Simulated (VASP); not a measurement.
# Cell lengths a and c of tetragonal TiAuGe2 (P4/mmm) from LDA to GGA, dispersion-corrected and meta-GGA functionals

TiAuGe2 combines an early transition metal with open d states, a noble metal with a nearly full d shell, and germanium, whose p states bond to both. The compound in this structure is hypothetical, made by swapping elements on a known one, and it is metallic at every level. I ask whether a change of functional scales its tetragonal cell evenly or acts mostly on one axis. This matters when a calculated cell is used to judge the strain of a metallic germanide film on a substrate, because an error in a and an error in c then have different consequences. I compare a and c, relaxed at zero pressure, between functionals, with PBE as the reference. No measured cell is compared here.

## Set-up

One crystal, TiAuGe2 (P4/mmm, 4 atoms) (hypothetical: elements swapped on a known structure); cell and atoms relaxed at zero pressure inside the space group at each level. Program: VASP 6.6.1, plane waves and PAW (data sets made for PBE also in the LDA runs of TiAuGe2; in all, for PBE of release 64), scalar-relativistic without spin-orbit coupling, no spin polarisation. Occupations: Fermi-Dirac smearing of 0.05 eV. Aspherical gradient corrections in the PAW spheres (LASPH) are on in some runs and off in others. Times are rough, from shared x86 server processors. The same in all rows: cutoff and k mesh: 520 eV, k 7×7×7.

Notes on method and selection:

- The relaxation keeps the space group of the starting structure, unless a run's flaw says otherwise, so it can't find a distortion to lower symmetry.
- VASP relaxes on the plane waves of its starting cell; rows come from the last relaxation, in which the volume moved by 7 % or less.
- D3(BJ) is an atom-based dispersion correction added to the functional. optB86b-vdW, BEEF-vdW hold a nonlocal correlation term.
- On a mesh of this density (26 Å, divisions times cell-vector length) the volume of a metal can be off its mesh-converged value by some tenths of a per cent, up to about one, alike for rows on one mesh; differences between rows are safer than distances from measurement.
- On the k meshes used the crystal is metallic at every level or point.
- Where a crystal was run more than once at a level, the run on the densest mesh (metals) or with the highest cutoff is shown; cells that lost their symmetry or did not come to rest are left out.
- Where a cited cell is compared, it is used only if the database entry bears it out to 0.6 % or a second determination confirms it.
- A table whose volumes refer to PBE has no confirmed cited cell, or one whose c/a every level misses to one side by over 1.2 %.
- Non-spherical gradient terms in the PAW spheres (LASPH) were as a rule on for AM05, RPBE, BLYP, D4 and meta-GGAs and in later sessions, and off for LDA, PBE, PBEsol and D3; where rows differ in this, it bears on volumes, moments and cost.
- Runs that did not converge, have known faults or may not be shown are not listed, and runs on Ansatz's PAW sets soft_1 and soft_2 are kept to separate tables.

Columns:

- a (Å): lattice constant a of the conventional cell.
- c (Å): lattice constant c of the conventional cell.
- c/a: axial ratio c/a.
- volume against PBE (%): relaxed volume over the PBE volume, minus one.
- volume (Å³): relaxed volume per atom.
- cost per iteration (core-s): processor time per electronic iteration, mean over the relaxation, shared machines, rough.

Input lines of one member:

```
PREC = Accurate
ENCUT = 520
EDIFF = 1E-06
NELM = 100
ISMEAR = -1
SIGMA = 0.05
LREAL = .FALSE.
ALGO = Normal
GGA = PE
LORBIT = 11
IBRION = 2
NSW = 60
ISIF = 3
EDIFFG = -0.01
```

Command (options for logging and memory left out): `vasp_std`

## Computed values

```
member       a (Å)   c (Å)   c/a     volume against PBE (%)  volume (Å³)  cost per iteration (core-s)  remark
SCAN         4.1849  3.6495  0.8721  −5.08                   15.979       13                           LASPH on
LDA          4.1945  ?       ?       ?                       ?            3.1
PBEsol       4.2236  3.6100  0.8547  −4.36                   16.099       3.2                          LASPH off
PBE+D3(BJ)   4.2240  3.6162  0.8561  −4.18                   16.130       3.8                          LASPH off
r2SCAN       4.2404  3.6594  0.8630  −2.28                   16.450       15                           LASPH on
optB86b-vdW  4.2559  3.6423  0.8558  −2.02                   16.493       7.7                          LASPH on
PBE          4.2787  3.6780  0.8596  0.00                    16.834       3.1                          LASPH off
BEEF-vdW     4.2971  3.6948  0.8598  1.32                    17.056       7                            LASPH on
```

Cells marked ? are withheld until the estimate has been made.

c (Å) against a (Å), members shown:

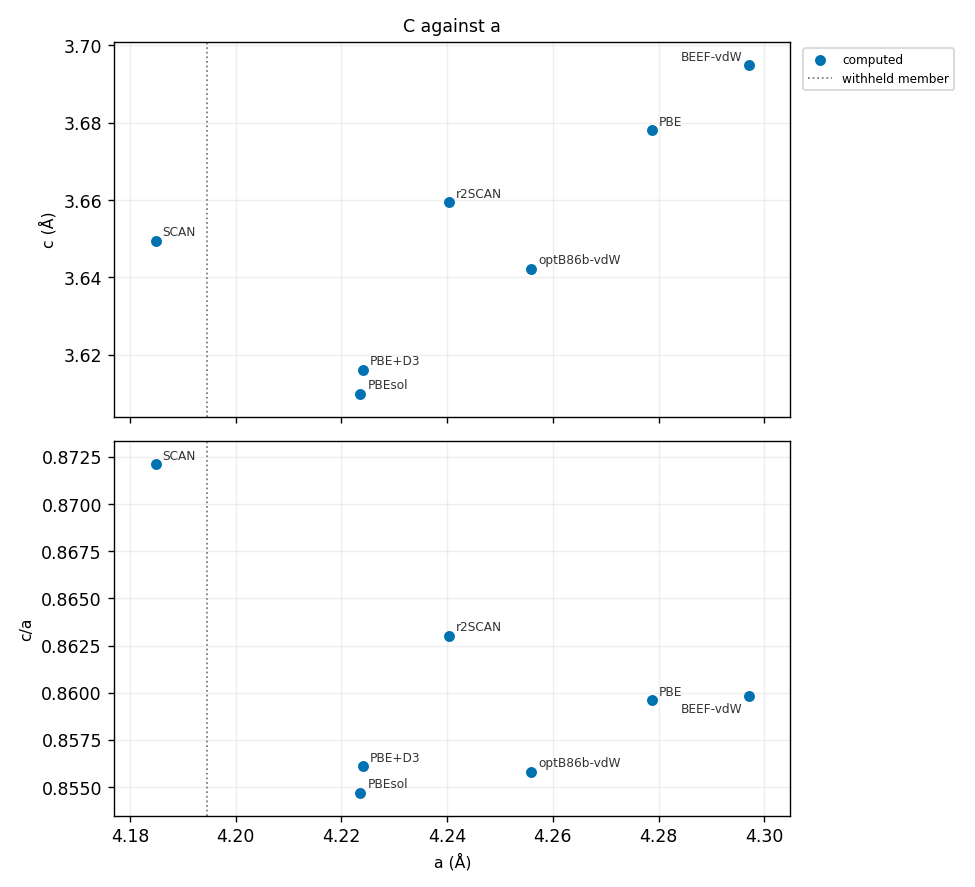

Least-squares fits to the members shown, with x = a (Å); R² and errors in the fitted variable (y, or ln y where the fit is in ln y):

```
y      members  fit                    R²    rms residual  leave-one-out rms  the same for the mean of the others
c (Å)  7        y = 1.276 + 0.5594 x   0.47  0.021         0.035              0.033 (fit no better)
c/a    7        y = 1.167 − 0.07233 x  0.20  0.0050        0.0084             0.0065 (fit no better)
```

## The trend and its physics

Among PBEsol, PBE+D3(BJ), optB86b-vdW, PBE and BEEF-vdW the two axes lengthen together, and over the whole range c takes the larger share, though not at every step. From PBEsol to PBE, a grows by 0.0551 / 4.2236 = 1.3 % and c by 0.0680 / 3.6100 = 1.9 %.

The general expansion has a known origin. PBE exchange rewards density gradients more than PBEsol exchange does, which favours separated atoms and lengthens bonds. D3(BJ) works the other way, by adding an attraction between atoms. It shortens a by 0.0547 Å and c by 0.0618 Å from PBE, and so ends close to the PBEsol cell. Two different changes in the energy thus lead to nearly the same change of shape. I take this as a hint that the crystal yields more easily along c, though no elastic constants are shown to confirm it.

The meta-GGAs break the pattern. SCAN has the shortest a of the rows shown in full, yet its c is 0.0395 Å longer than that of PBEsol. From SCAN to r2SCAN, a grows by 0.0555 Å and c by only 0.0099 Å, so here a takes nearly all of the change. The two functionals are close relatives, and a volume difference of 16.450 / 15.979 − 1 = 2.9 % between them is large. SCAN's known sensitivity to numerical settings should be examined before a bonding explanation is sought.

With the meta-GGAs included, a straight line of c against a predicts no better than the mean of the other members. Joint motion of the axes is therefore a finding about the five functionals named first, not about functionals in general. One further converged relaxation of this crystal is not in the table, so the finding covers only the runs listed.

## Prediction

Plain estimates from the members shown:

- LDA, straight-line interpolation between SCAN and PBEsol: w = (4.1945 − 4.1849) / (4.2236 − 4.1849) = 0.248, so 3.6495 + 0.248 × (3.6100 − 3.6495) = 3.6397 Å

The plain interpolation gives 3.6397 Å, but it leans on SCAN, which leaves the common path. LDA has no gradient term and no kinetic-energy-density term, so I place it on the continuation of the path from PBE to PBEsol, towards weaker gradient corrections.

For the five members without SCAN and r2SCAN, the mean c is (3.6100 + 3.6162 + 3.6423 + 3.6780 + 3.6948) / 5 = 3.6483 Å and the mean a is (4.2236 + 4.2240 + 4.2559 + 4.2787 + 4.2971) / 5 = 4.2559 Å, the same as a of optB86b-vdW, which therefore drops out of the slope. The least-squares slope is ((4.2236 − 4.2559) × (3.6100 − 3.6483) + (4.2240 − 4.2559) × (3.6162 − 3.6483) + (4.2787 − 4.2559) × (3.6780 − 3.6483) + (4.2971 − 4.2559) × (3.6948 − 3.6483)) / ((4.2236 − 4.2559)² + (4.2240 − 4.2559)² + (4.2787 − 4.2559)² + (4.2971 − 4.2559)²) = 1.135. The line is thus c = 3.6483 + 1.135 × (a − 4.2559), in Å. Leaving out each member in turn gives an rms miss of 0.006 Å, against roughly 0.042 Å for the mean of the others. BEEF-vdW, predicted from the other four beyond the end of their range, is met within 0.001 Å. LASPH is on for two of the five and off for three, and both groups stay within about 0.006 Å of the line.

For LDA the line gives 3.6483 + 1.135 × (4.1945 − 4.2559) = 3.579 Å. The volume would be 4.1945² × 3.579 / 4 = 15.74 Å³ per atom, which is 1 − 15.74 / 16.099 = 2.2 % below PBEsol, a usual distance between these two functionals.

The residual scatter of the line, 0.005 Å with three degrees of freedom, grows to 0.007 Å at this distance outside the fitted range, by the usual prediction error of a least-squares line, which adds the uncertainties of its mean and slope to the scatter. I round it up to 0.008 Å because LDA is a different class of functional from the five.

**Committed estimate, LDA: c = 3.579 ± 0.008 Å.**

## How the estimate fared

```
member  a (Å)   c (Å)   c/a     volume against PBE (%)  volume (Å³)  cost per iteration (core-s)  remark
LDA     4.1945  3.5727  0.8517  −6.65                   15.715       3.1                          LASPH off
```

```
member  estimate       c (Å)   computed  estimate − computed  miss in error bars
LDA     committed      3.5790  3.5727    +0.0063              0.8
LDA     interpolation  3.6397  3.5727    +0.0670
```

c (Å) against a (Å):

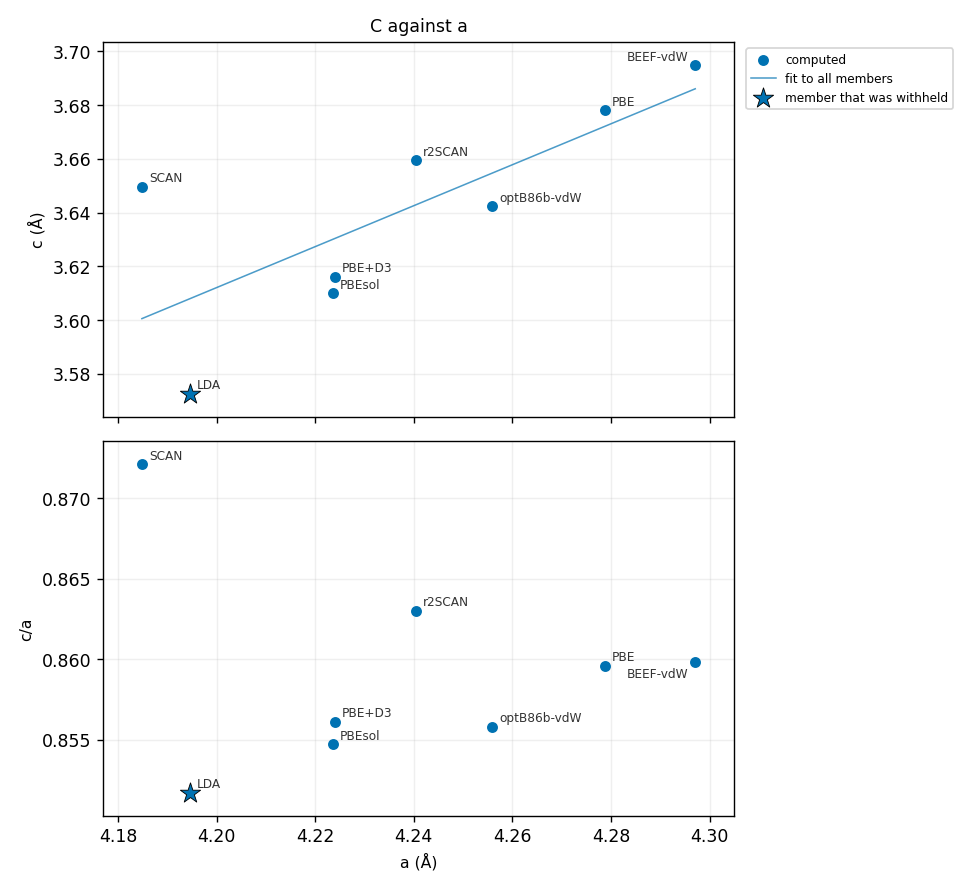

The estimate of 3.579 ± 0.008 Å lies 0.0063 Å above the computed 3.5727 Å, a miss of 0.8 error bars. The interpolation between SCAN and PBEsol missed by 0.0670 Å, about ten times as much, because it carried SCAN's long c over to LDA.

The argument that held was to place LDA on the path of the gradient-corrected and dispersion-corrected functionals. From LDA to PBE, a grows by 0.0842 / 4.1945 = 2.0 % and c by 0.1053 / 3.5727 = 2.9 %, so c again takes the larger share. Removing the gradient correction altogether continues the change of shape that PBEsol began.

LDA thus also fits the suggestion that the crystal is softer along c. The suggestion remains an inference from cell lengths, without elastic constants behind it.

## Members off the line

Least-squares fits to the whole series, with x = a (Å); R² and errors in the fitted variable (y, or ln y where the fit is in ln y):

```
y      members  fit                     R²    rms residual  leave-one-out rms  the same for the mean of the others
c (Å)  8        y = 0.4134 + 0.7616 x   0.56  0.024         0.036              0.042
c/a    8        y = 0.9596 − 0.02371 x  0.02  0.0058        0.0087             0.0067 (fit no better)
```

Largest departures from the fit to the whole series:

```
member  c (Å)   fit     computed − fit  in rms residuals
SCAN    3.6495  3.6006  +0.0489         2.0
LDA     3.5727  3.6079  −0.0352         1.4
PBEsol  3.6100  3.6301  −0.0201         0.8
r2SCAN  3.6594  3.6429  +0.0165         0.7
```

SCAN lies farthest from the fit to the whole series, with c 0.0489 Å above it, or 2.0 rms residuals. LDA follows at 0.0352 Å below. The LDA departure comes from the fit itself: SCAN has nearly the same a but a c longer by 0.0768 Å, and one straight line has to pass between the two.

Without the two meta-GGAs, a least-squares line of c against a through the other six members has a slope of about 1.2, and LDA is within 0.003 Å of it. SCAN then stands roughly 0.085 Å above the line and r2SCAN roughly 0.030 Å above.

SCAN's volume is only 0.7 % below that of PBEsol, while its c/a is 2.0 % larger. The difference is thus mainly one of shape, which a uniform pressure acting on the PBEsol cell would not produce. LASPH is an unlikely cause, since optB86b-vdW and BEEF-vdW also have it on and stay near the line. SCAN's sensitivity to the integration grid is a possible numerical cause. A different balance between bonding within the plane of the a axes and bonding between planes along c, brought in by the kinetic-energy density, is another, and it would suit the common sign of the two meta-GGA departures.

## Cost

LDA, PBE and PBEsol cost about the same, near 3 core-seconds per electronic iteration, and D3(BJ) adds little that can be told from scatter on shared machines. The two functionals with nonlocal correlation take somewhat more than twice the PBE time (7 / 3.1 = 2.3 and 7.7 / 3.1 = 2.5), and the meta-GGAs four to five times (13 / 3.1 = 4.2 and 15 / 3.1 = 4.8).

For the relation between a and c, the nonlocal functionals add nothing that the cheap ones do not already show. The meta-GGAs do give a different cell shape, but with no measured cell to compare, the extra time cannot be credited with better accuracy.

## Closing remarks

For the six functionals other than SCAN and r2SCAN, a and c move together, and 1 % in a goes with about 1.4 % in c. This holds for a from 4.1945 to 4.2971 Å. Leaving out each of the six in turn, their line predicts c with an rms miss of 0.005 Å, against 0.050 Å for the mean of the others. It should not be used for a meta-GGA.

For a film grown with its a axes in the plane of a substrate of fixed lattice constant, changing from LDA to PBE shifts the calculated mismatch by about 2 percentage points. An error in c leaves this mismatch alone, but shifts the unstrained length against which strain along the film normal is judged.

Thermal expansion, left out here, would probably lengthen the axes by some tenths of a per cent up to room temperature, well below the spread in c over all rows, 3.6948 / 3.5727 − 1 = 3.4 %. A distortion to lower symmetry, which these relaxations exclude, could change the cell by more than that spread, with a sign I cannot predict.

[Logs are printed without paths, hosts, clocks, repeated set-up lines and the standing remarks that a program may print on its own settings, such as how far it seeks lower states.]
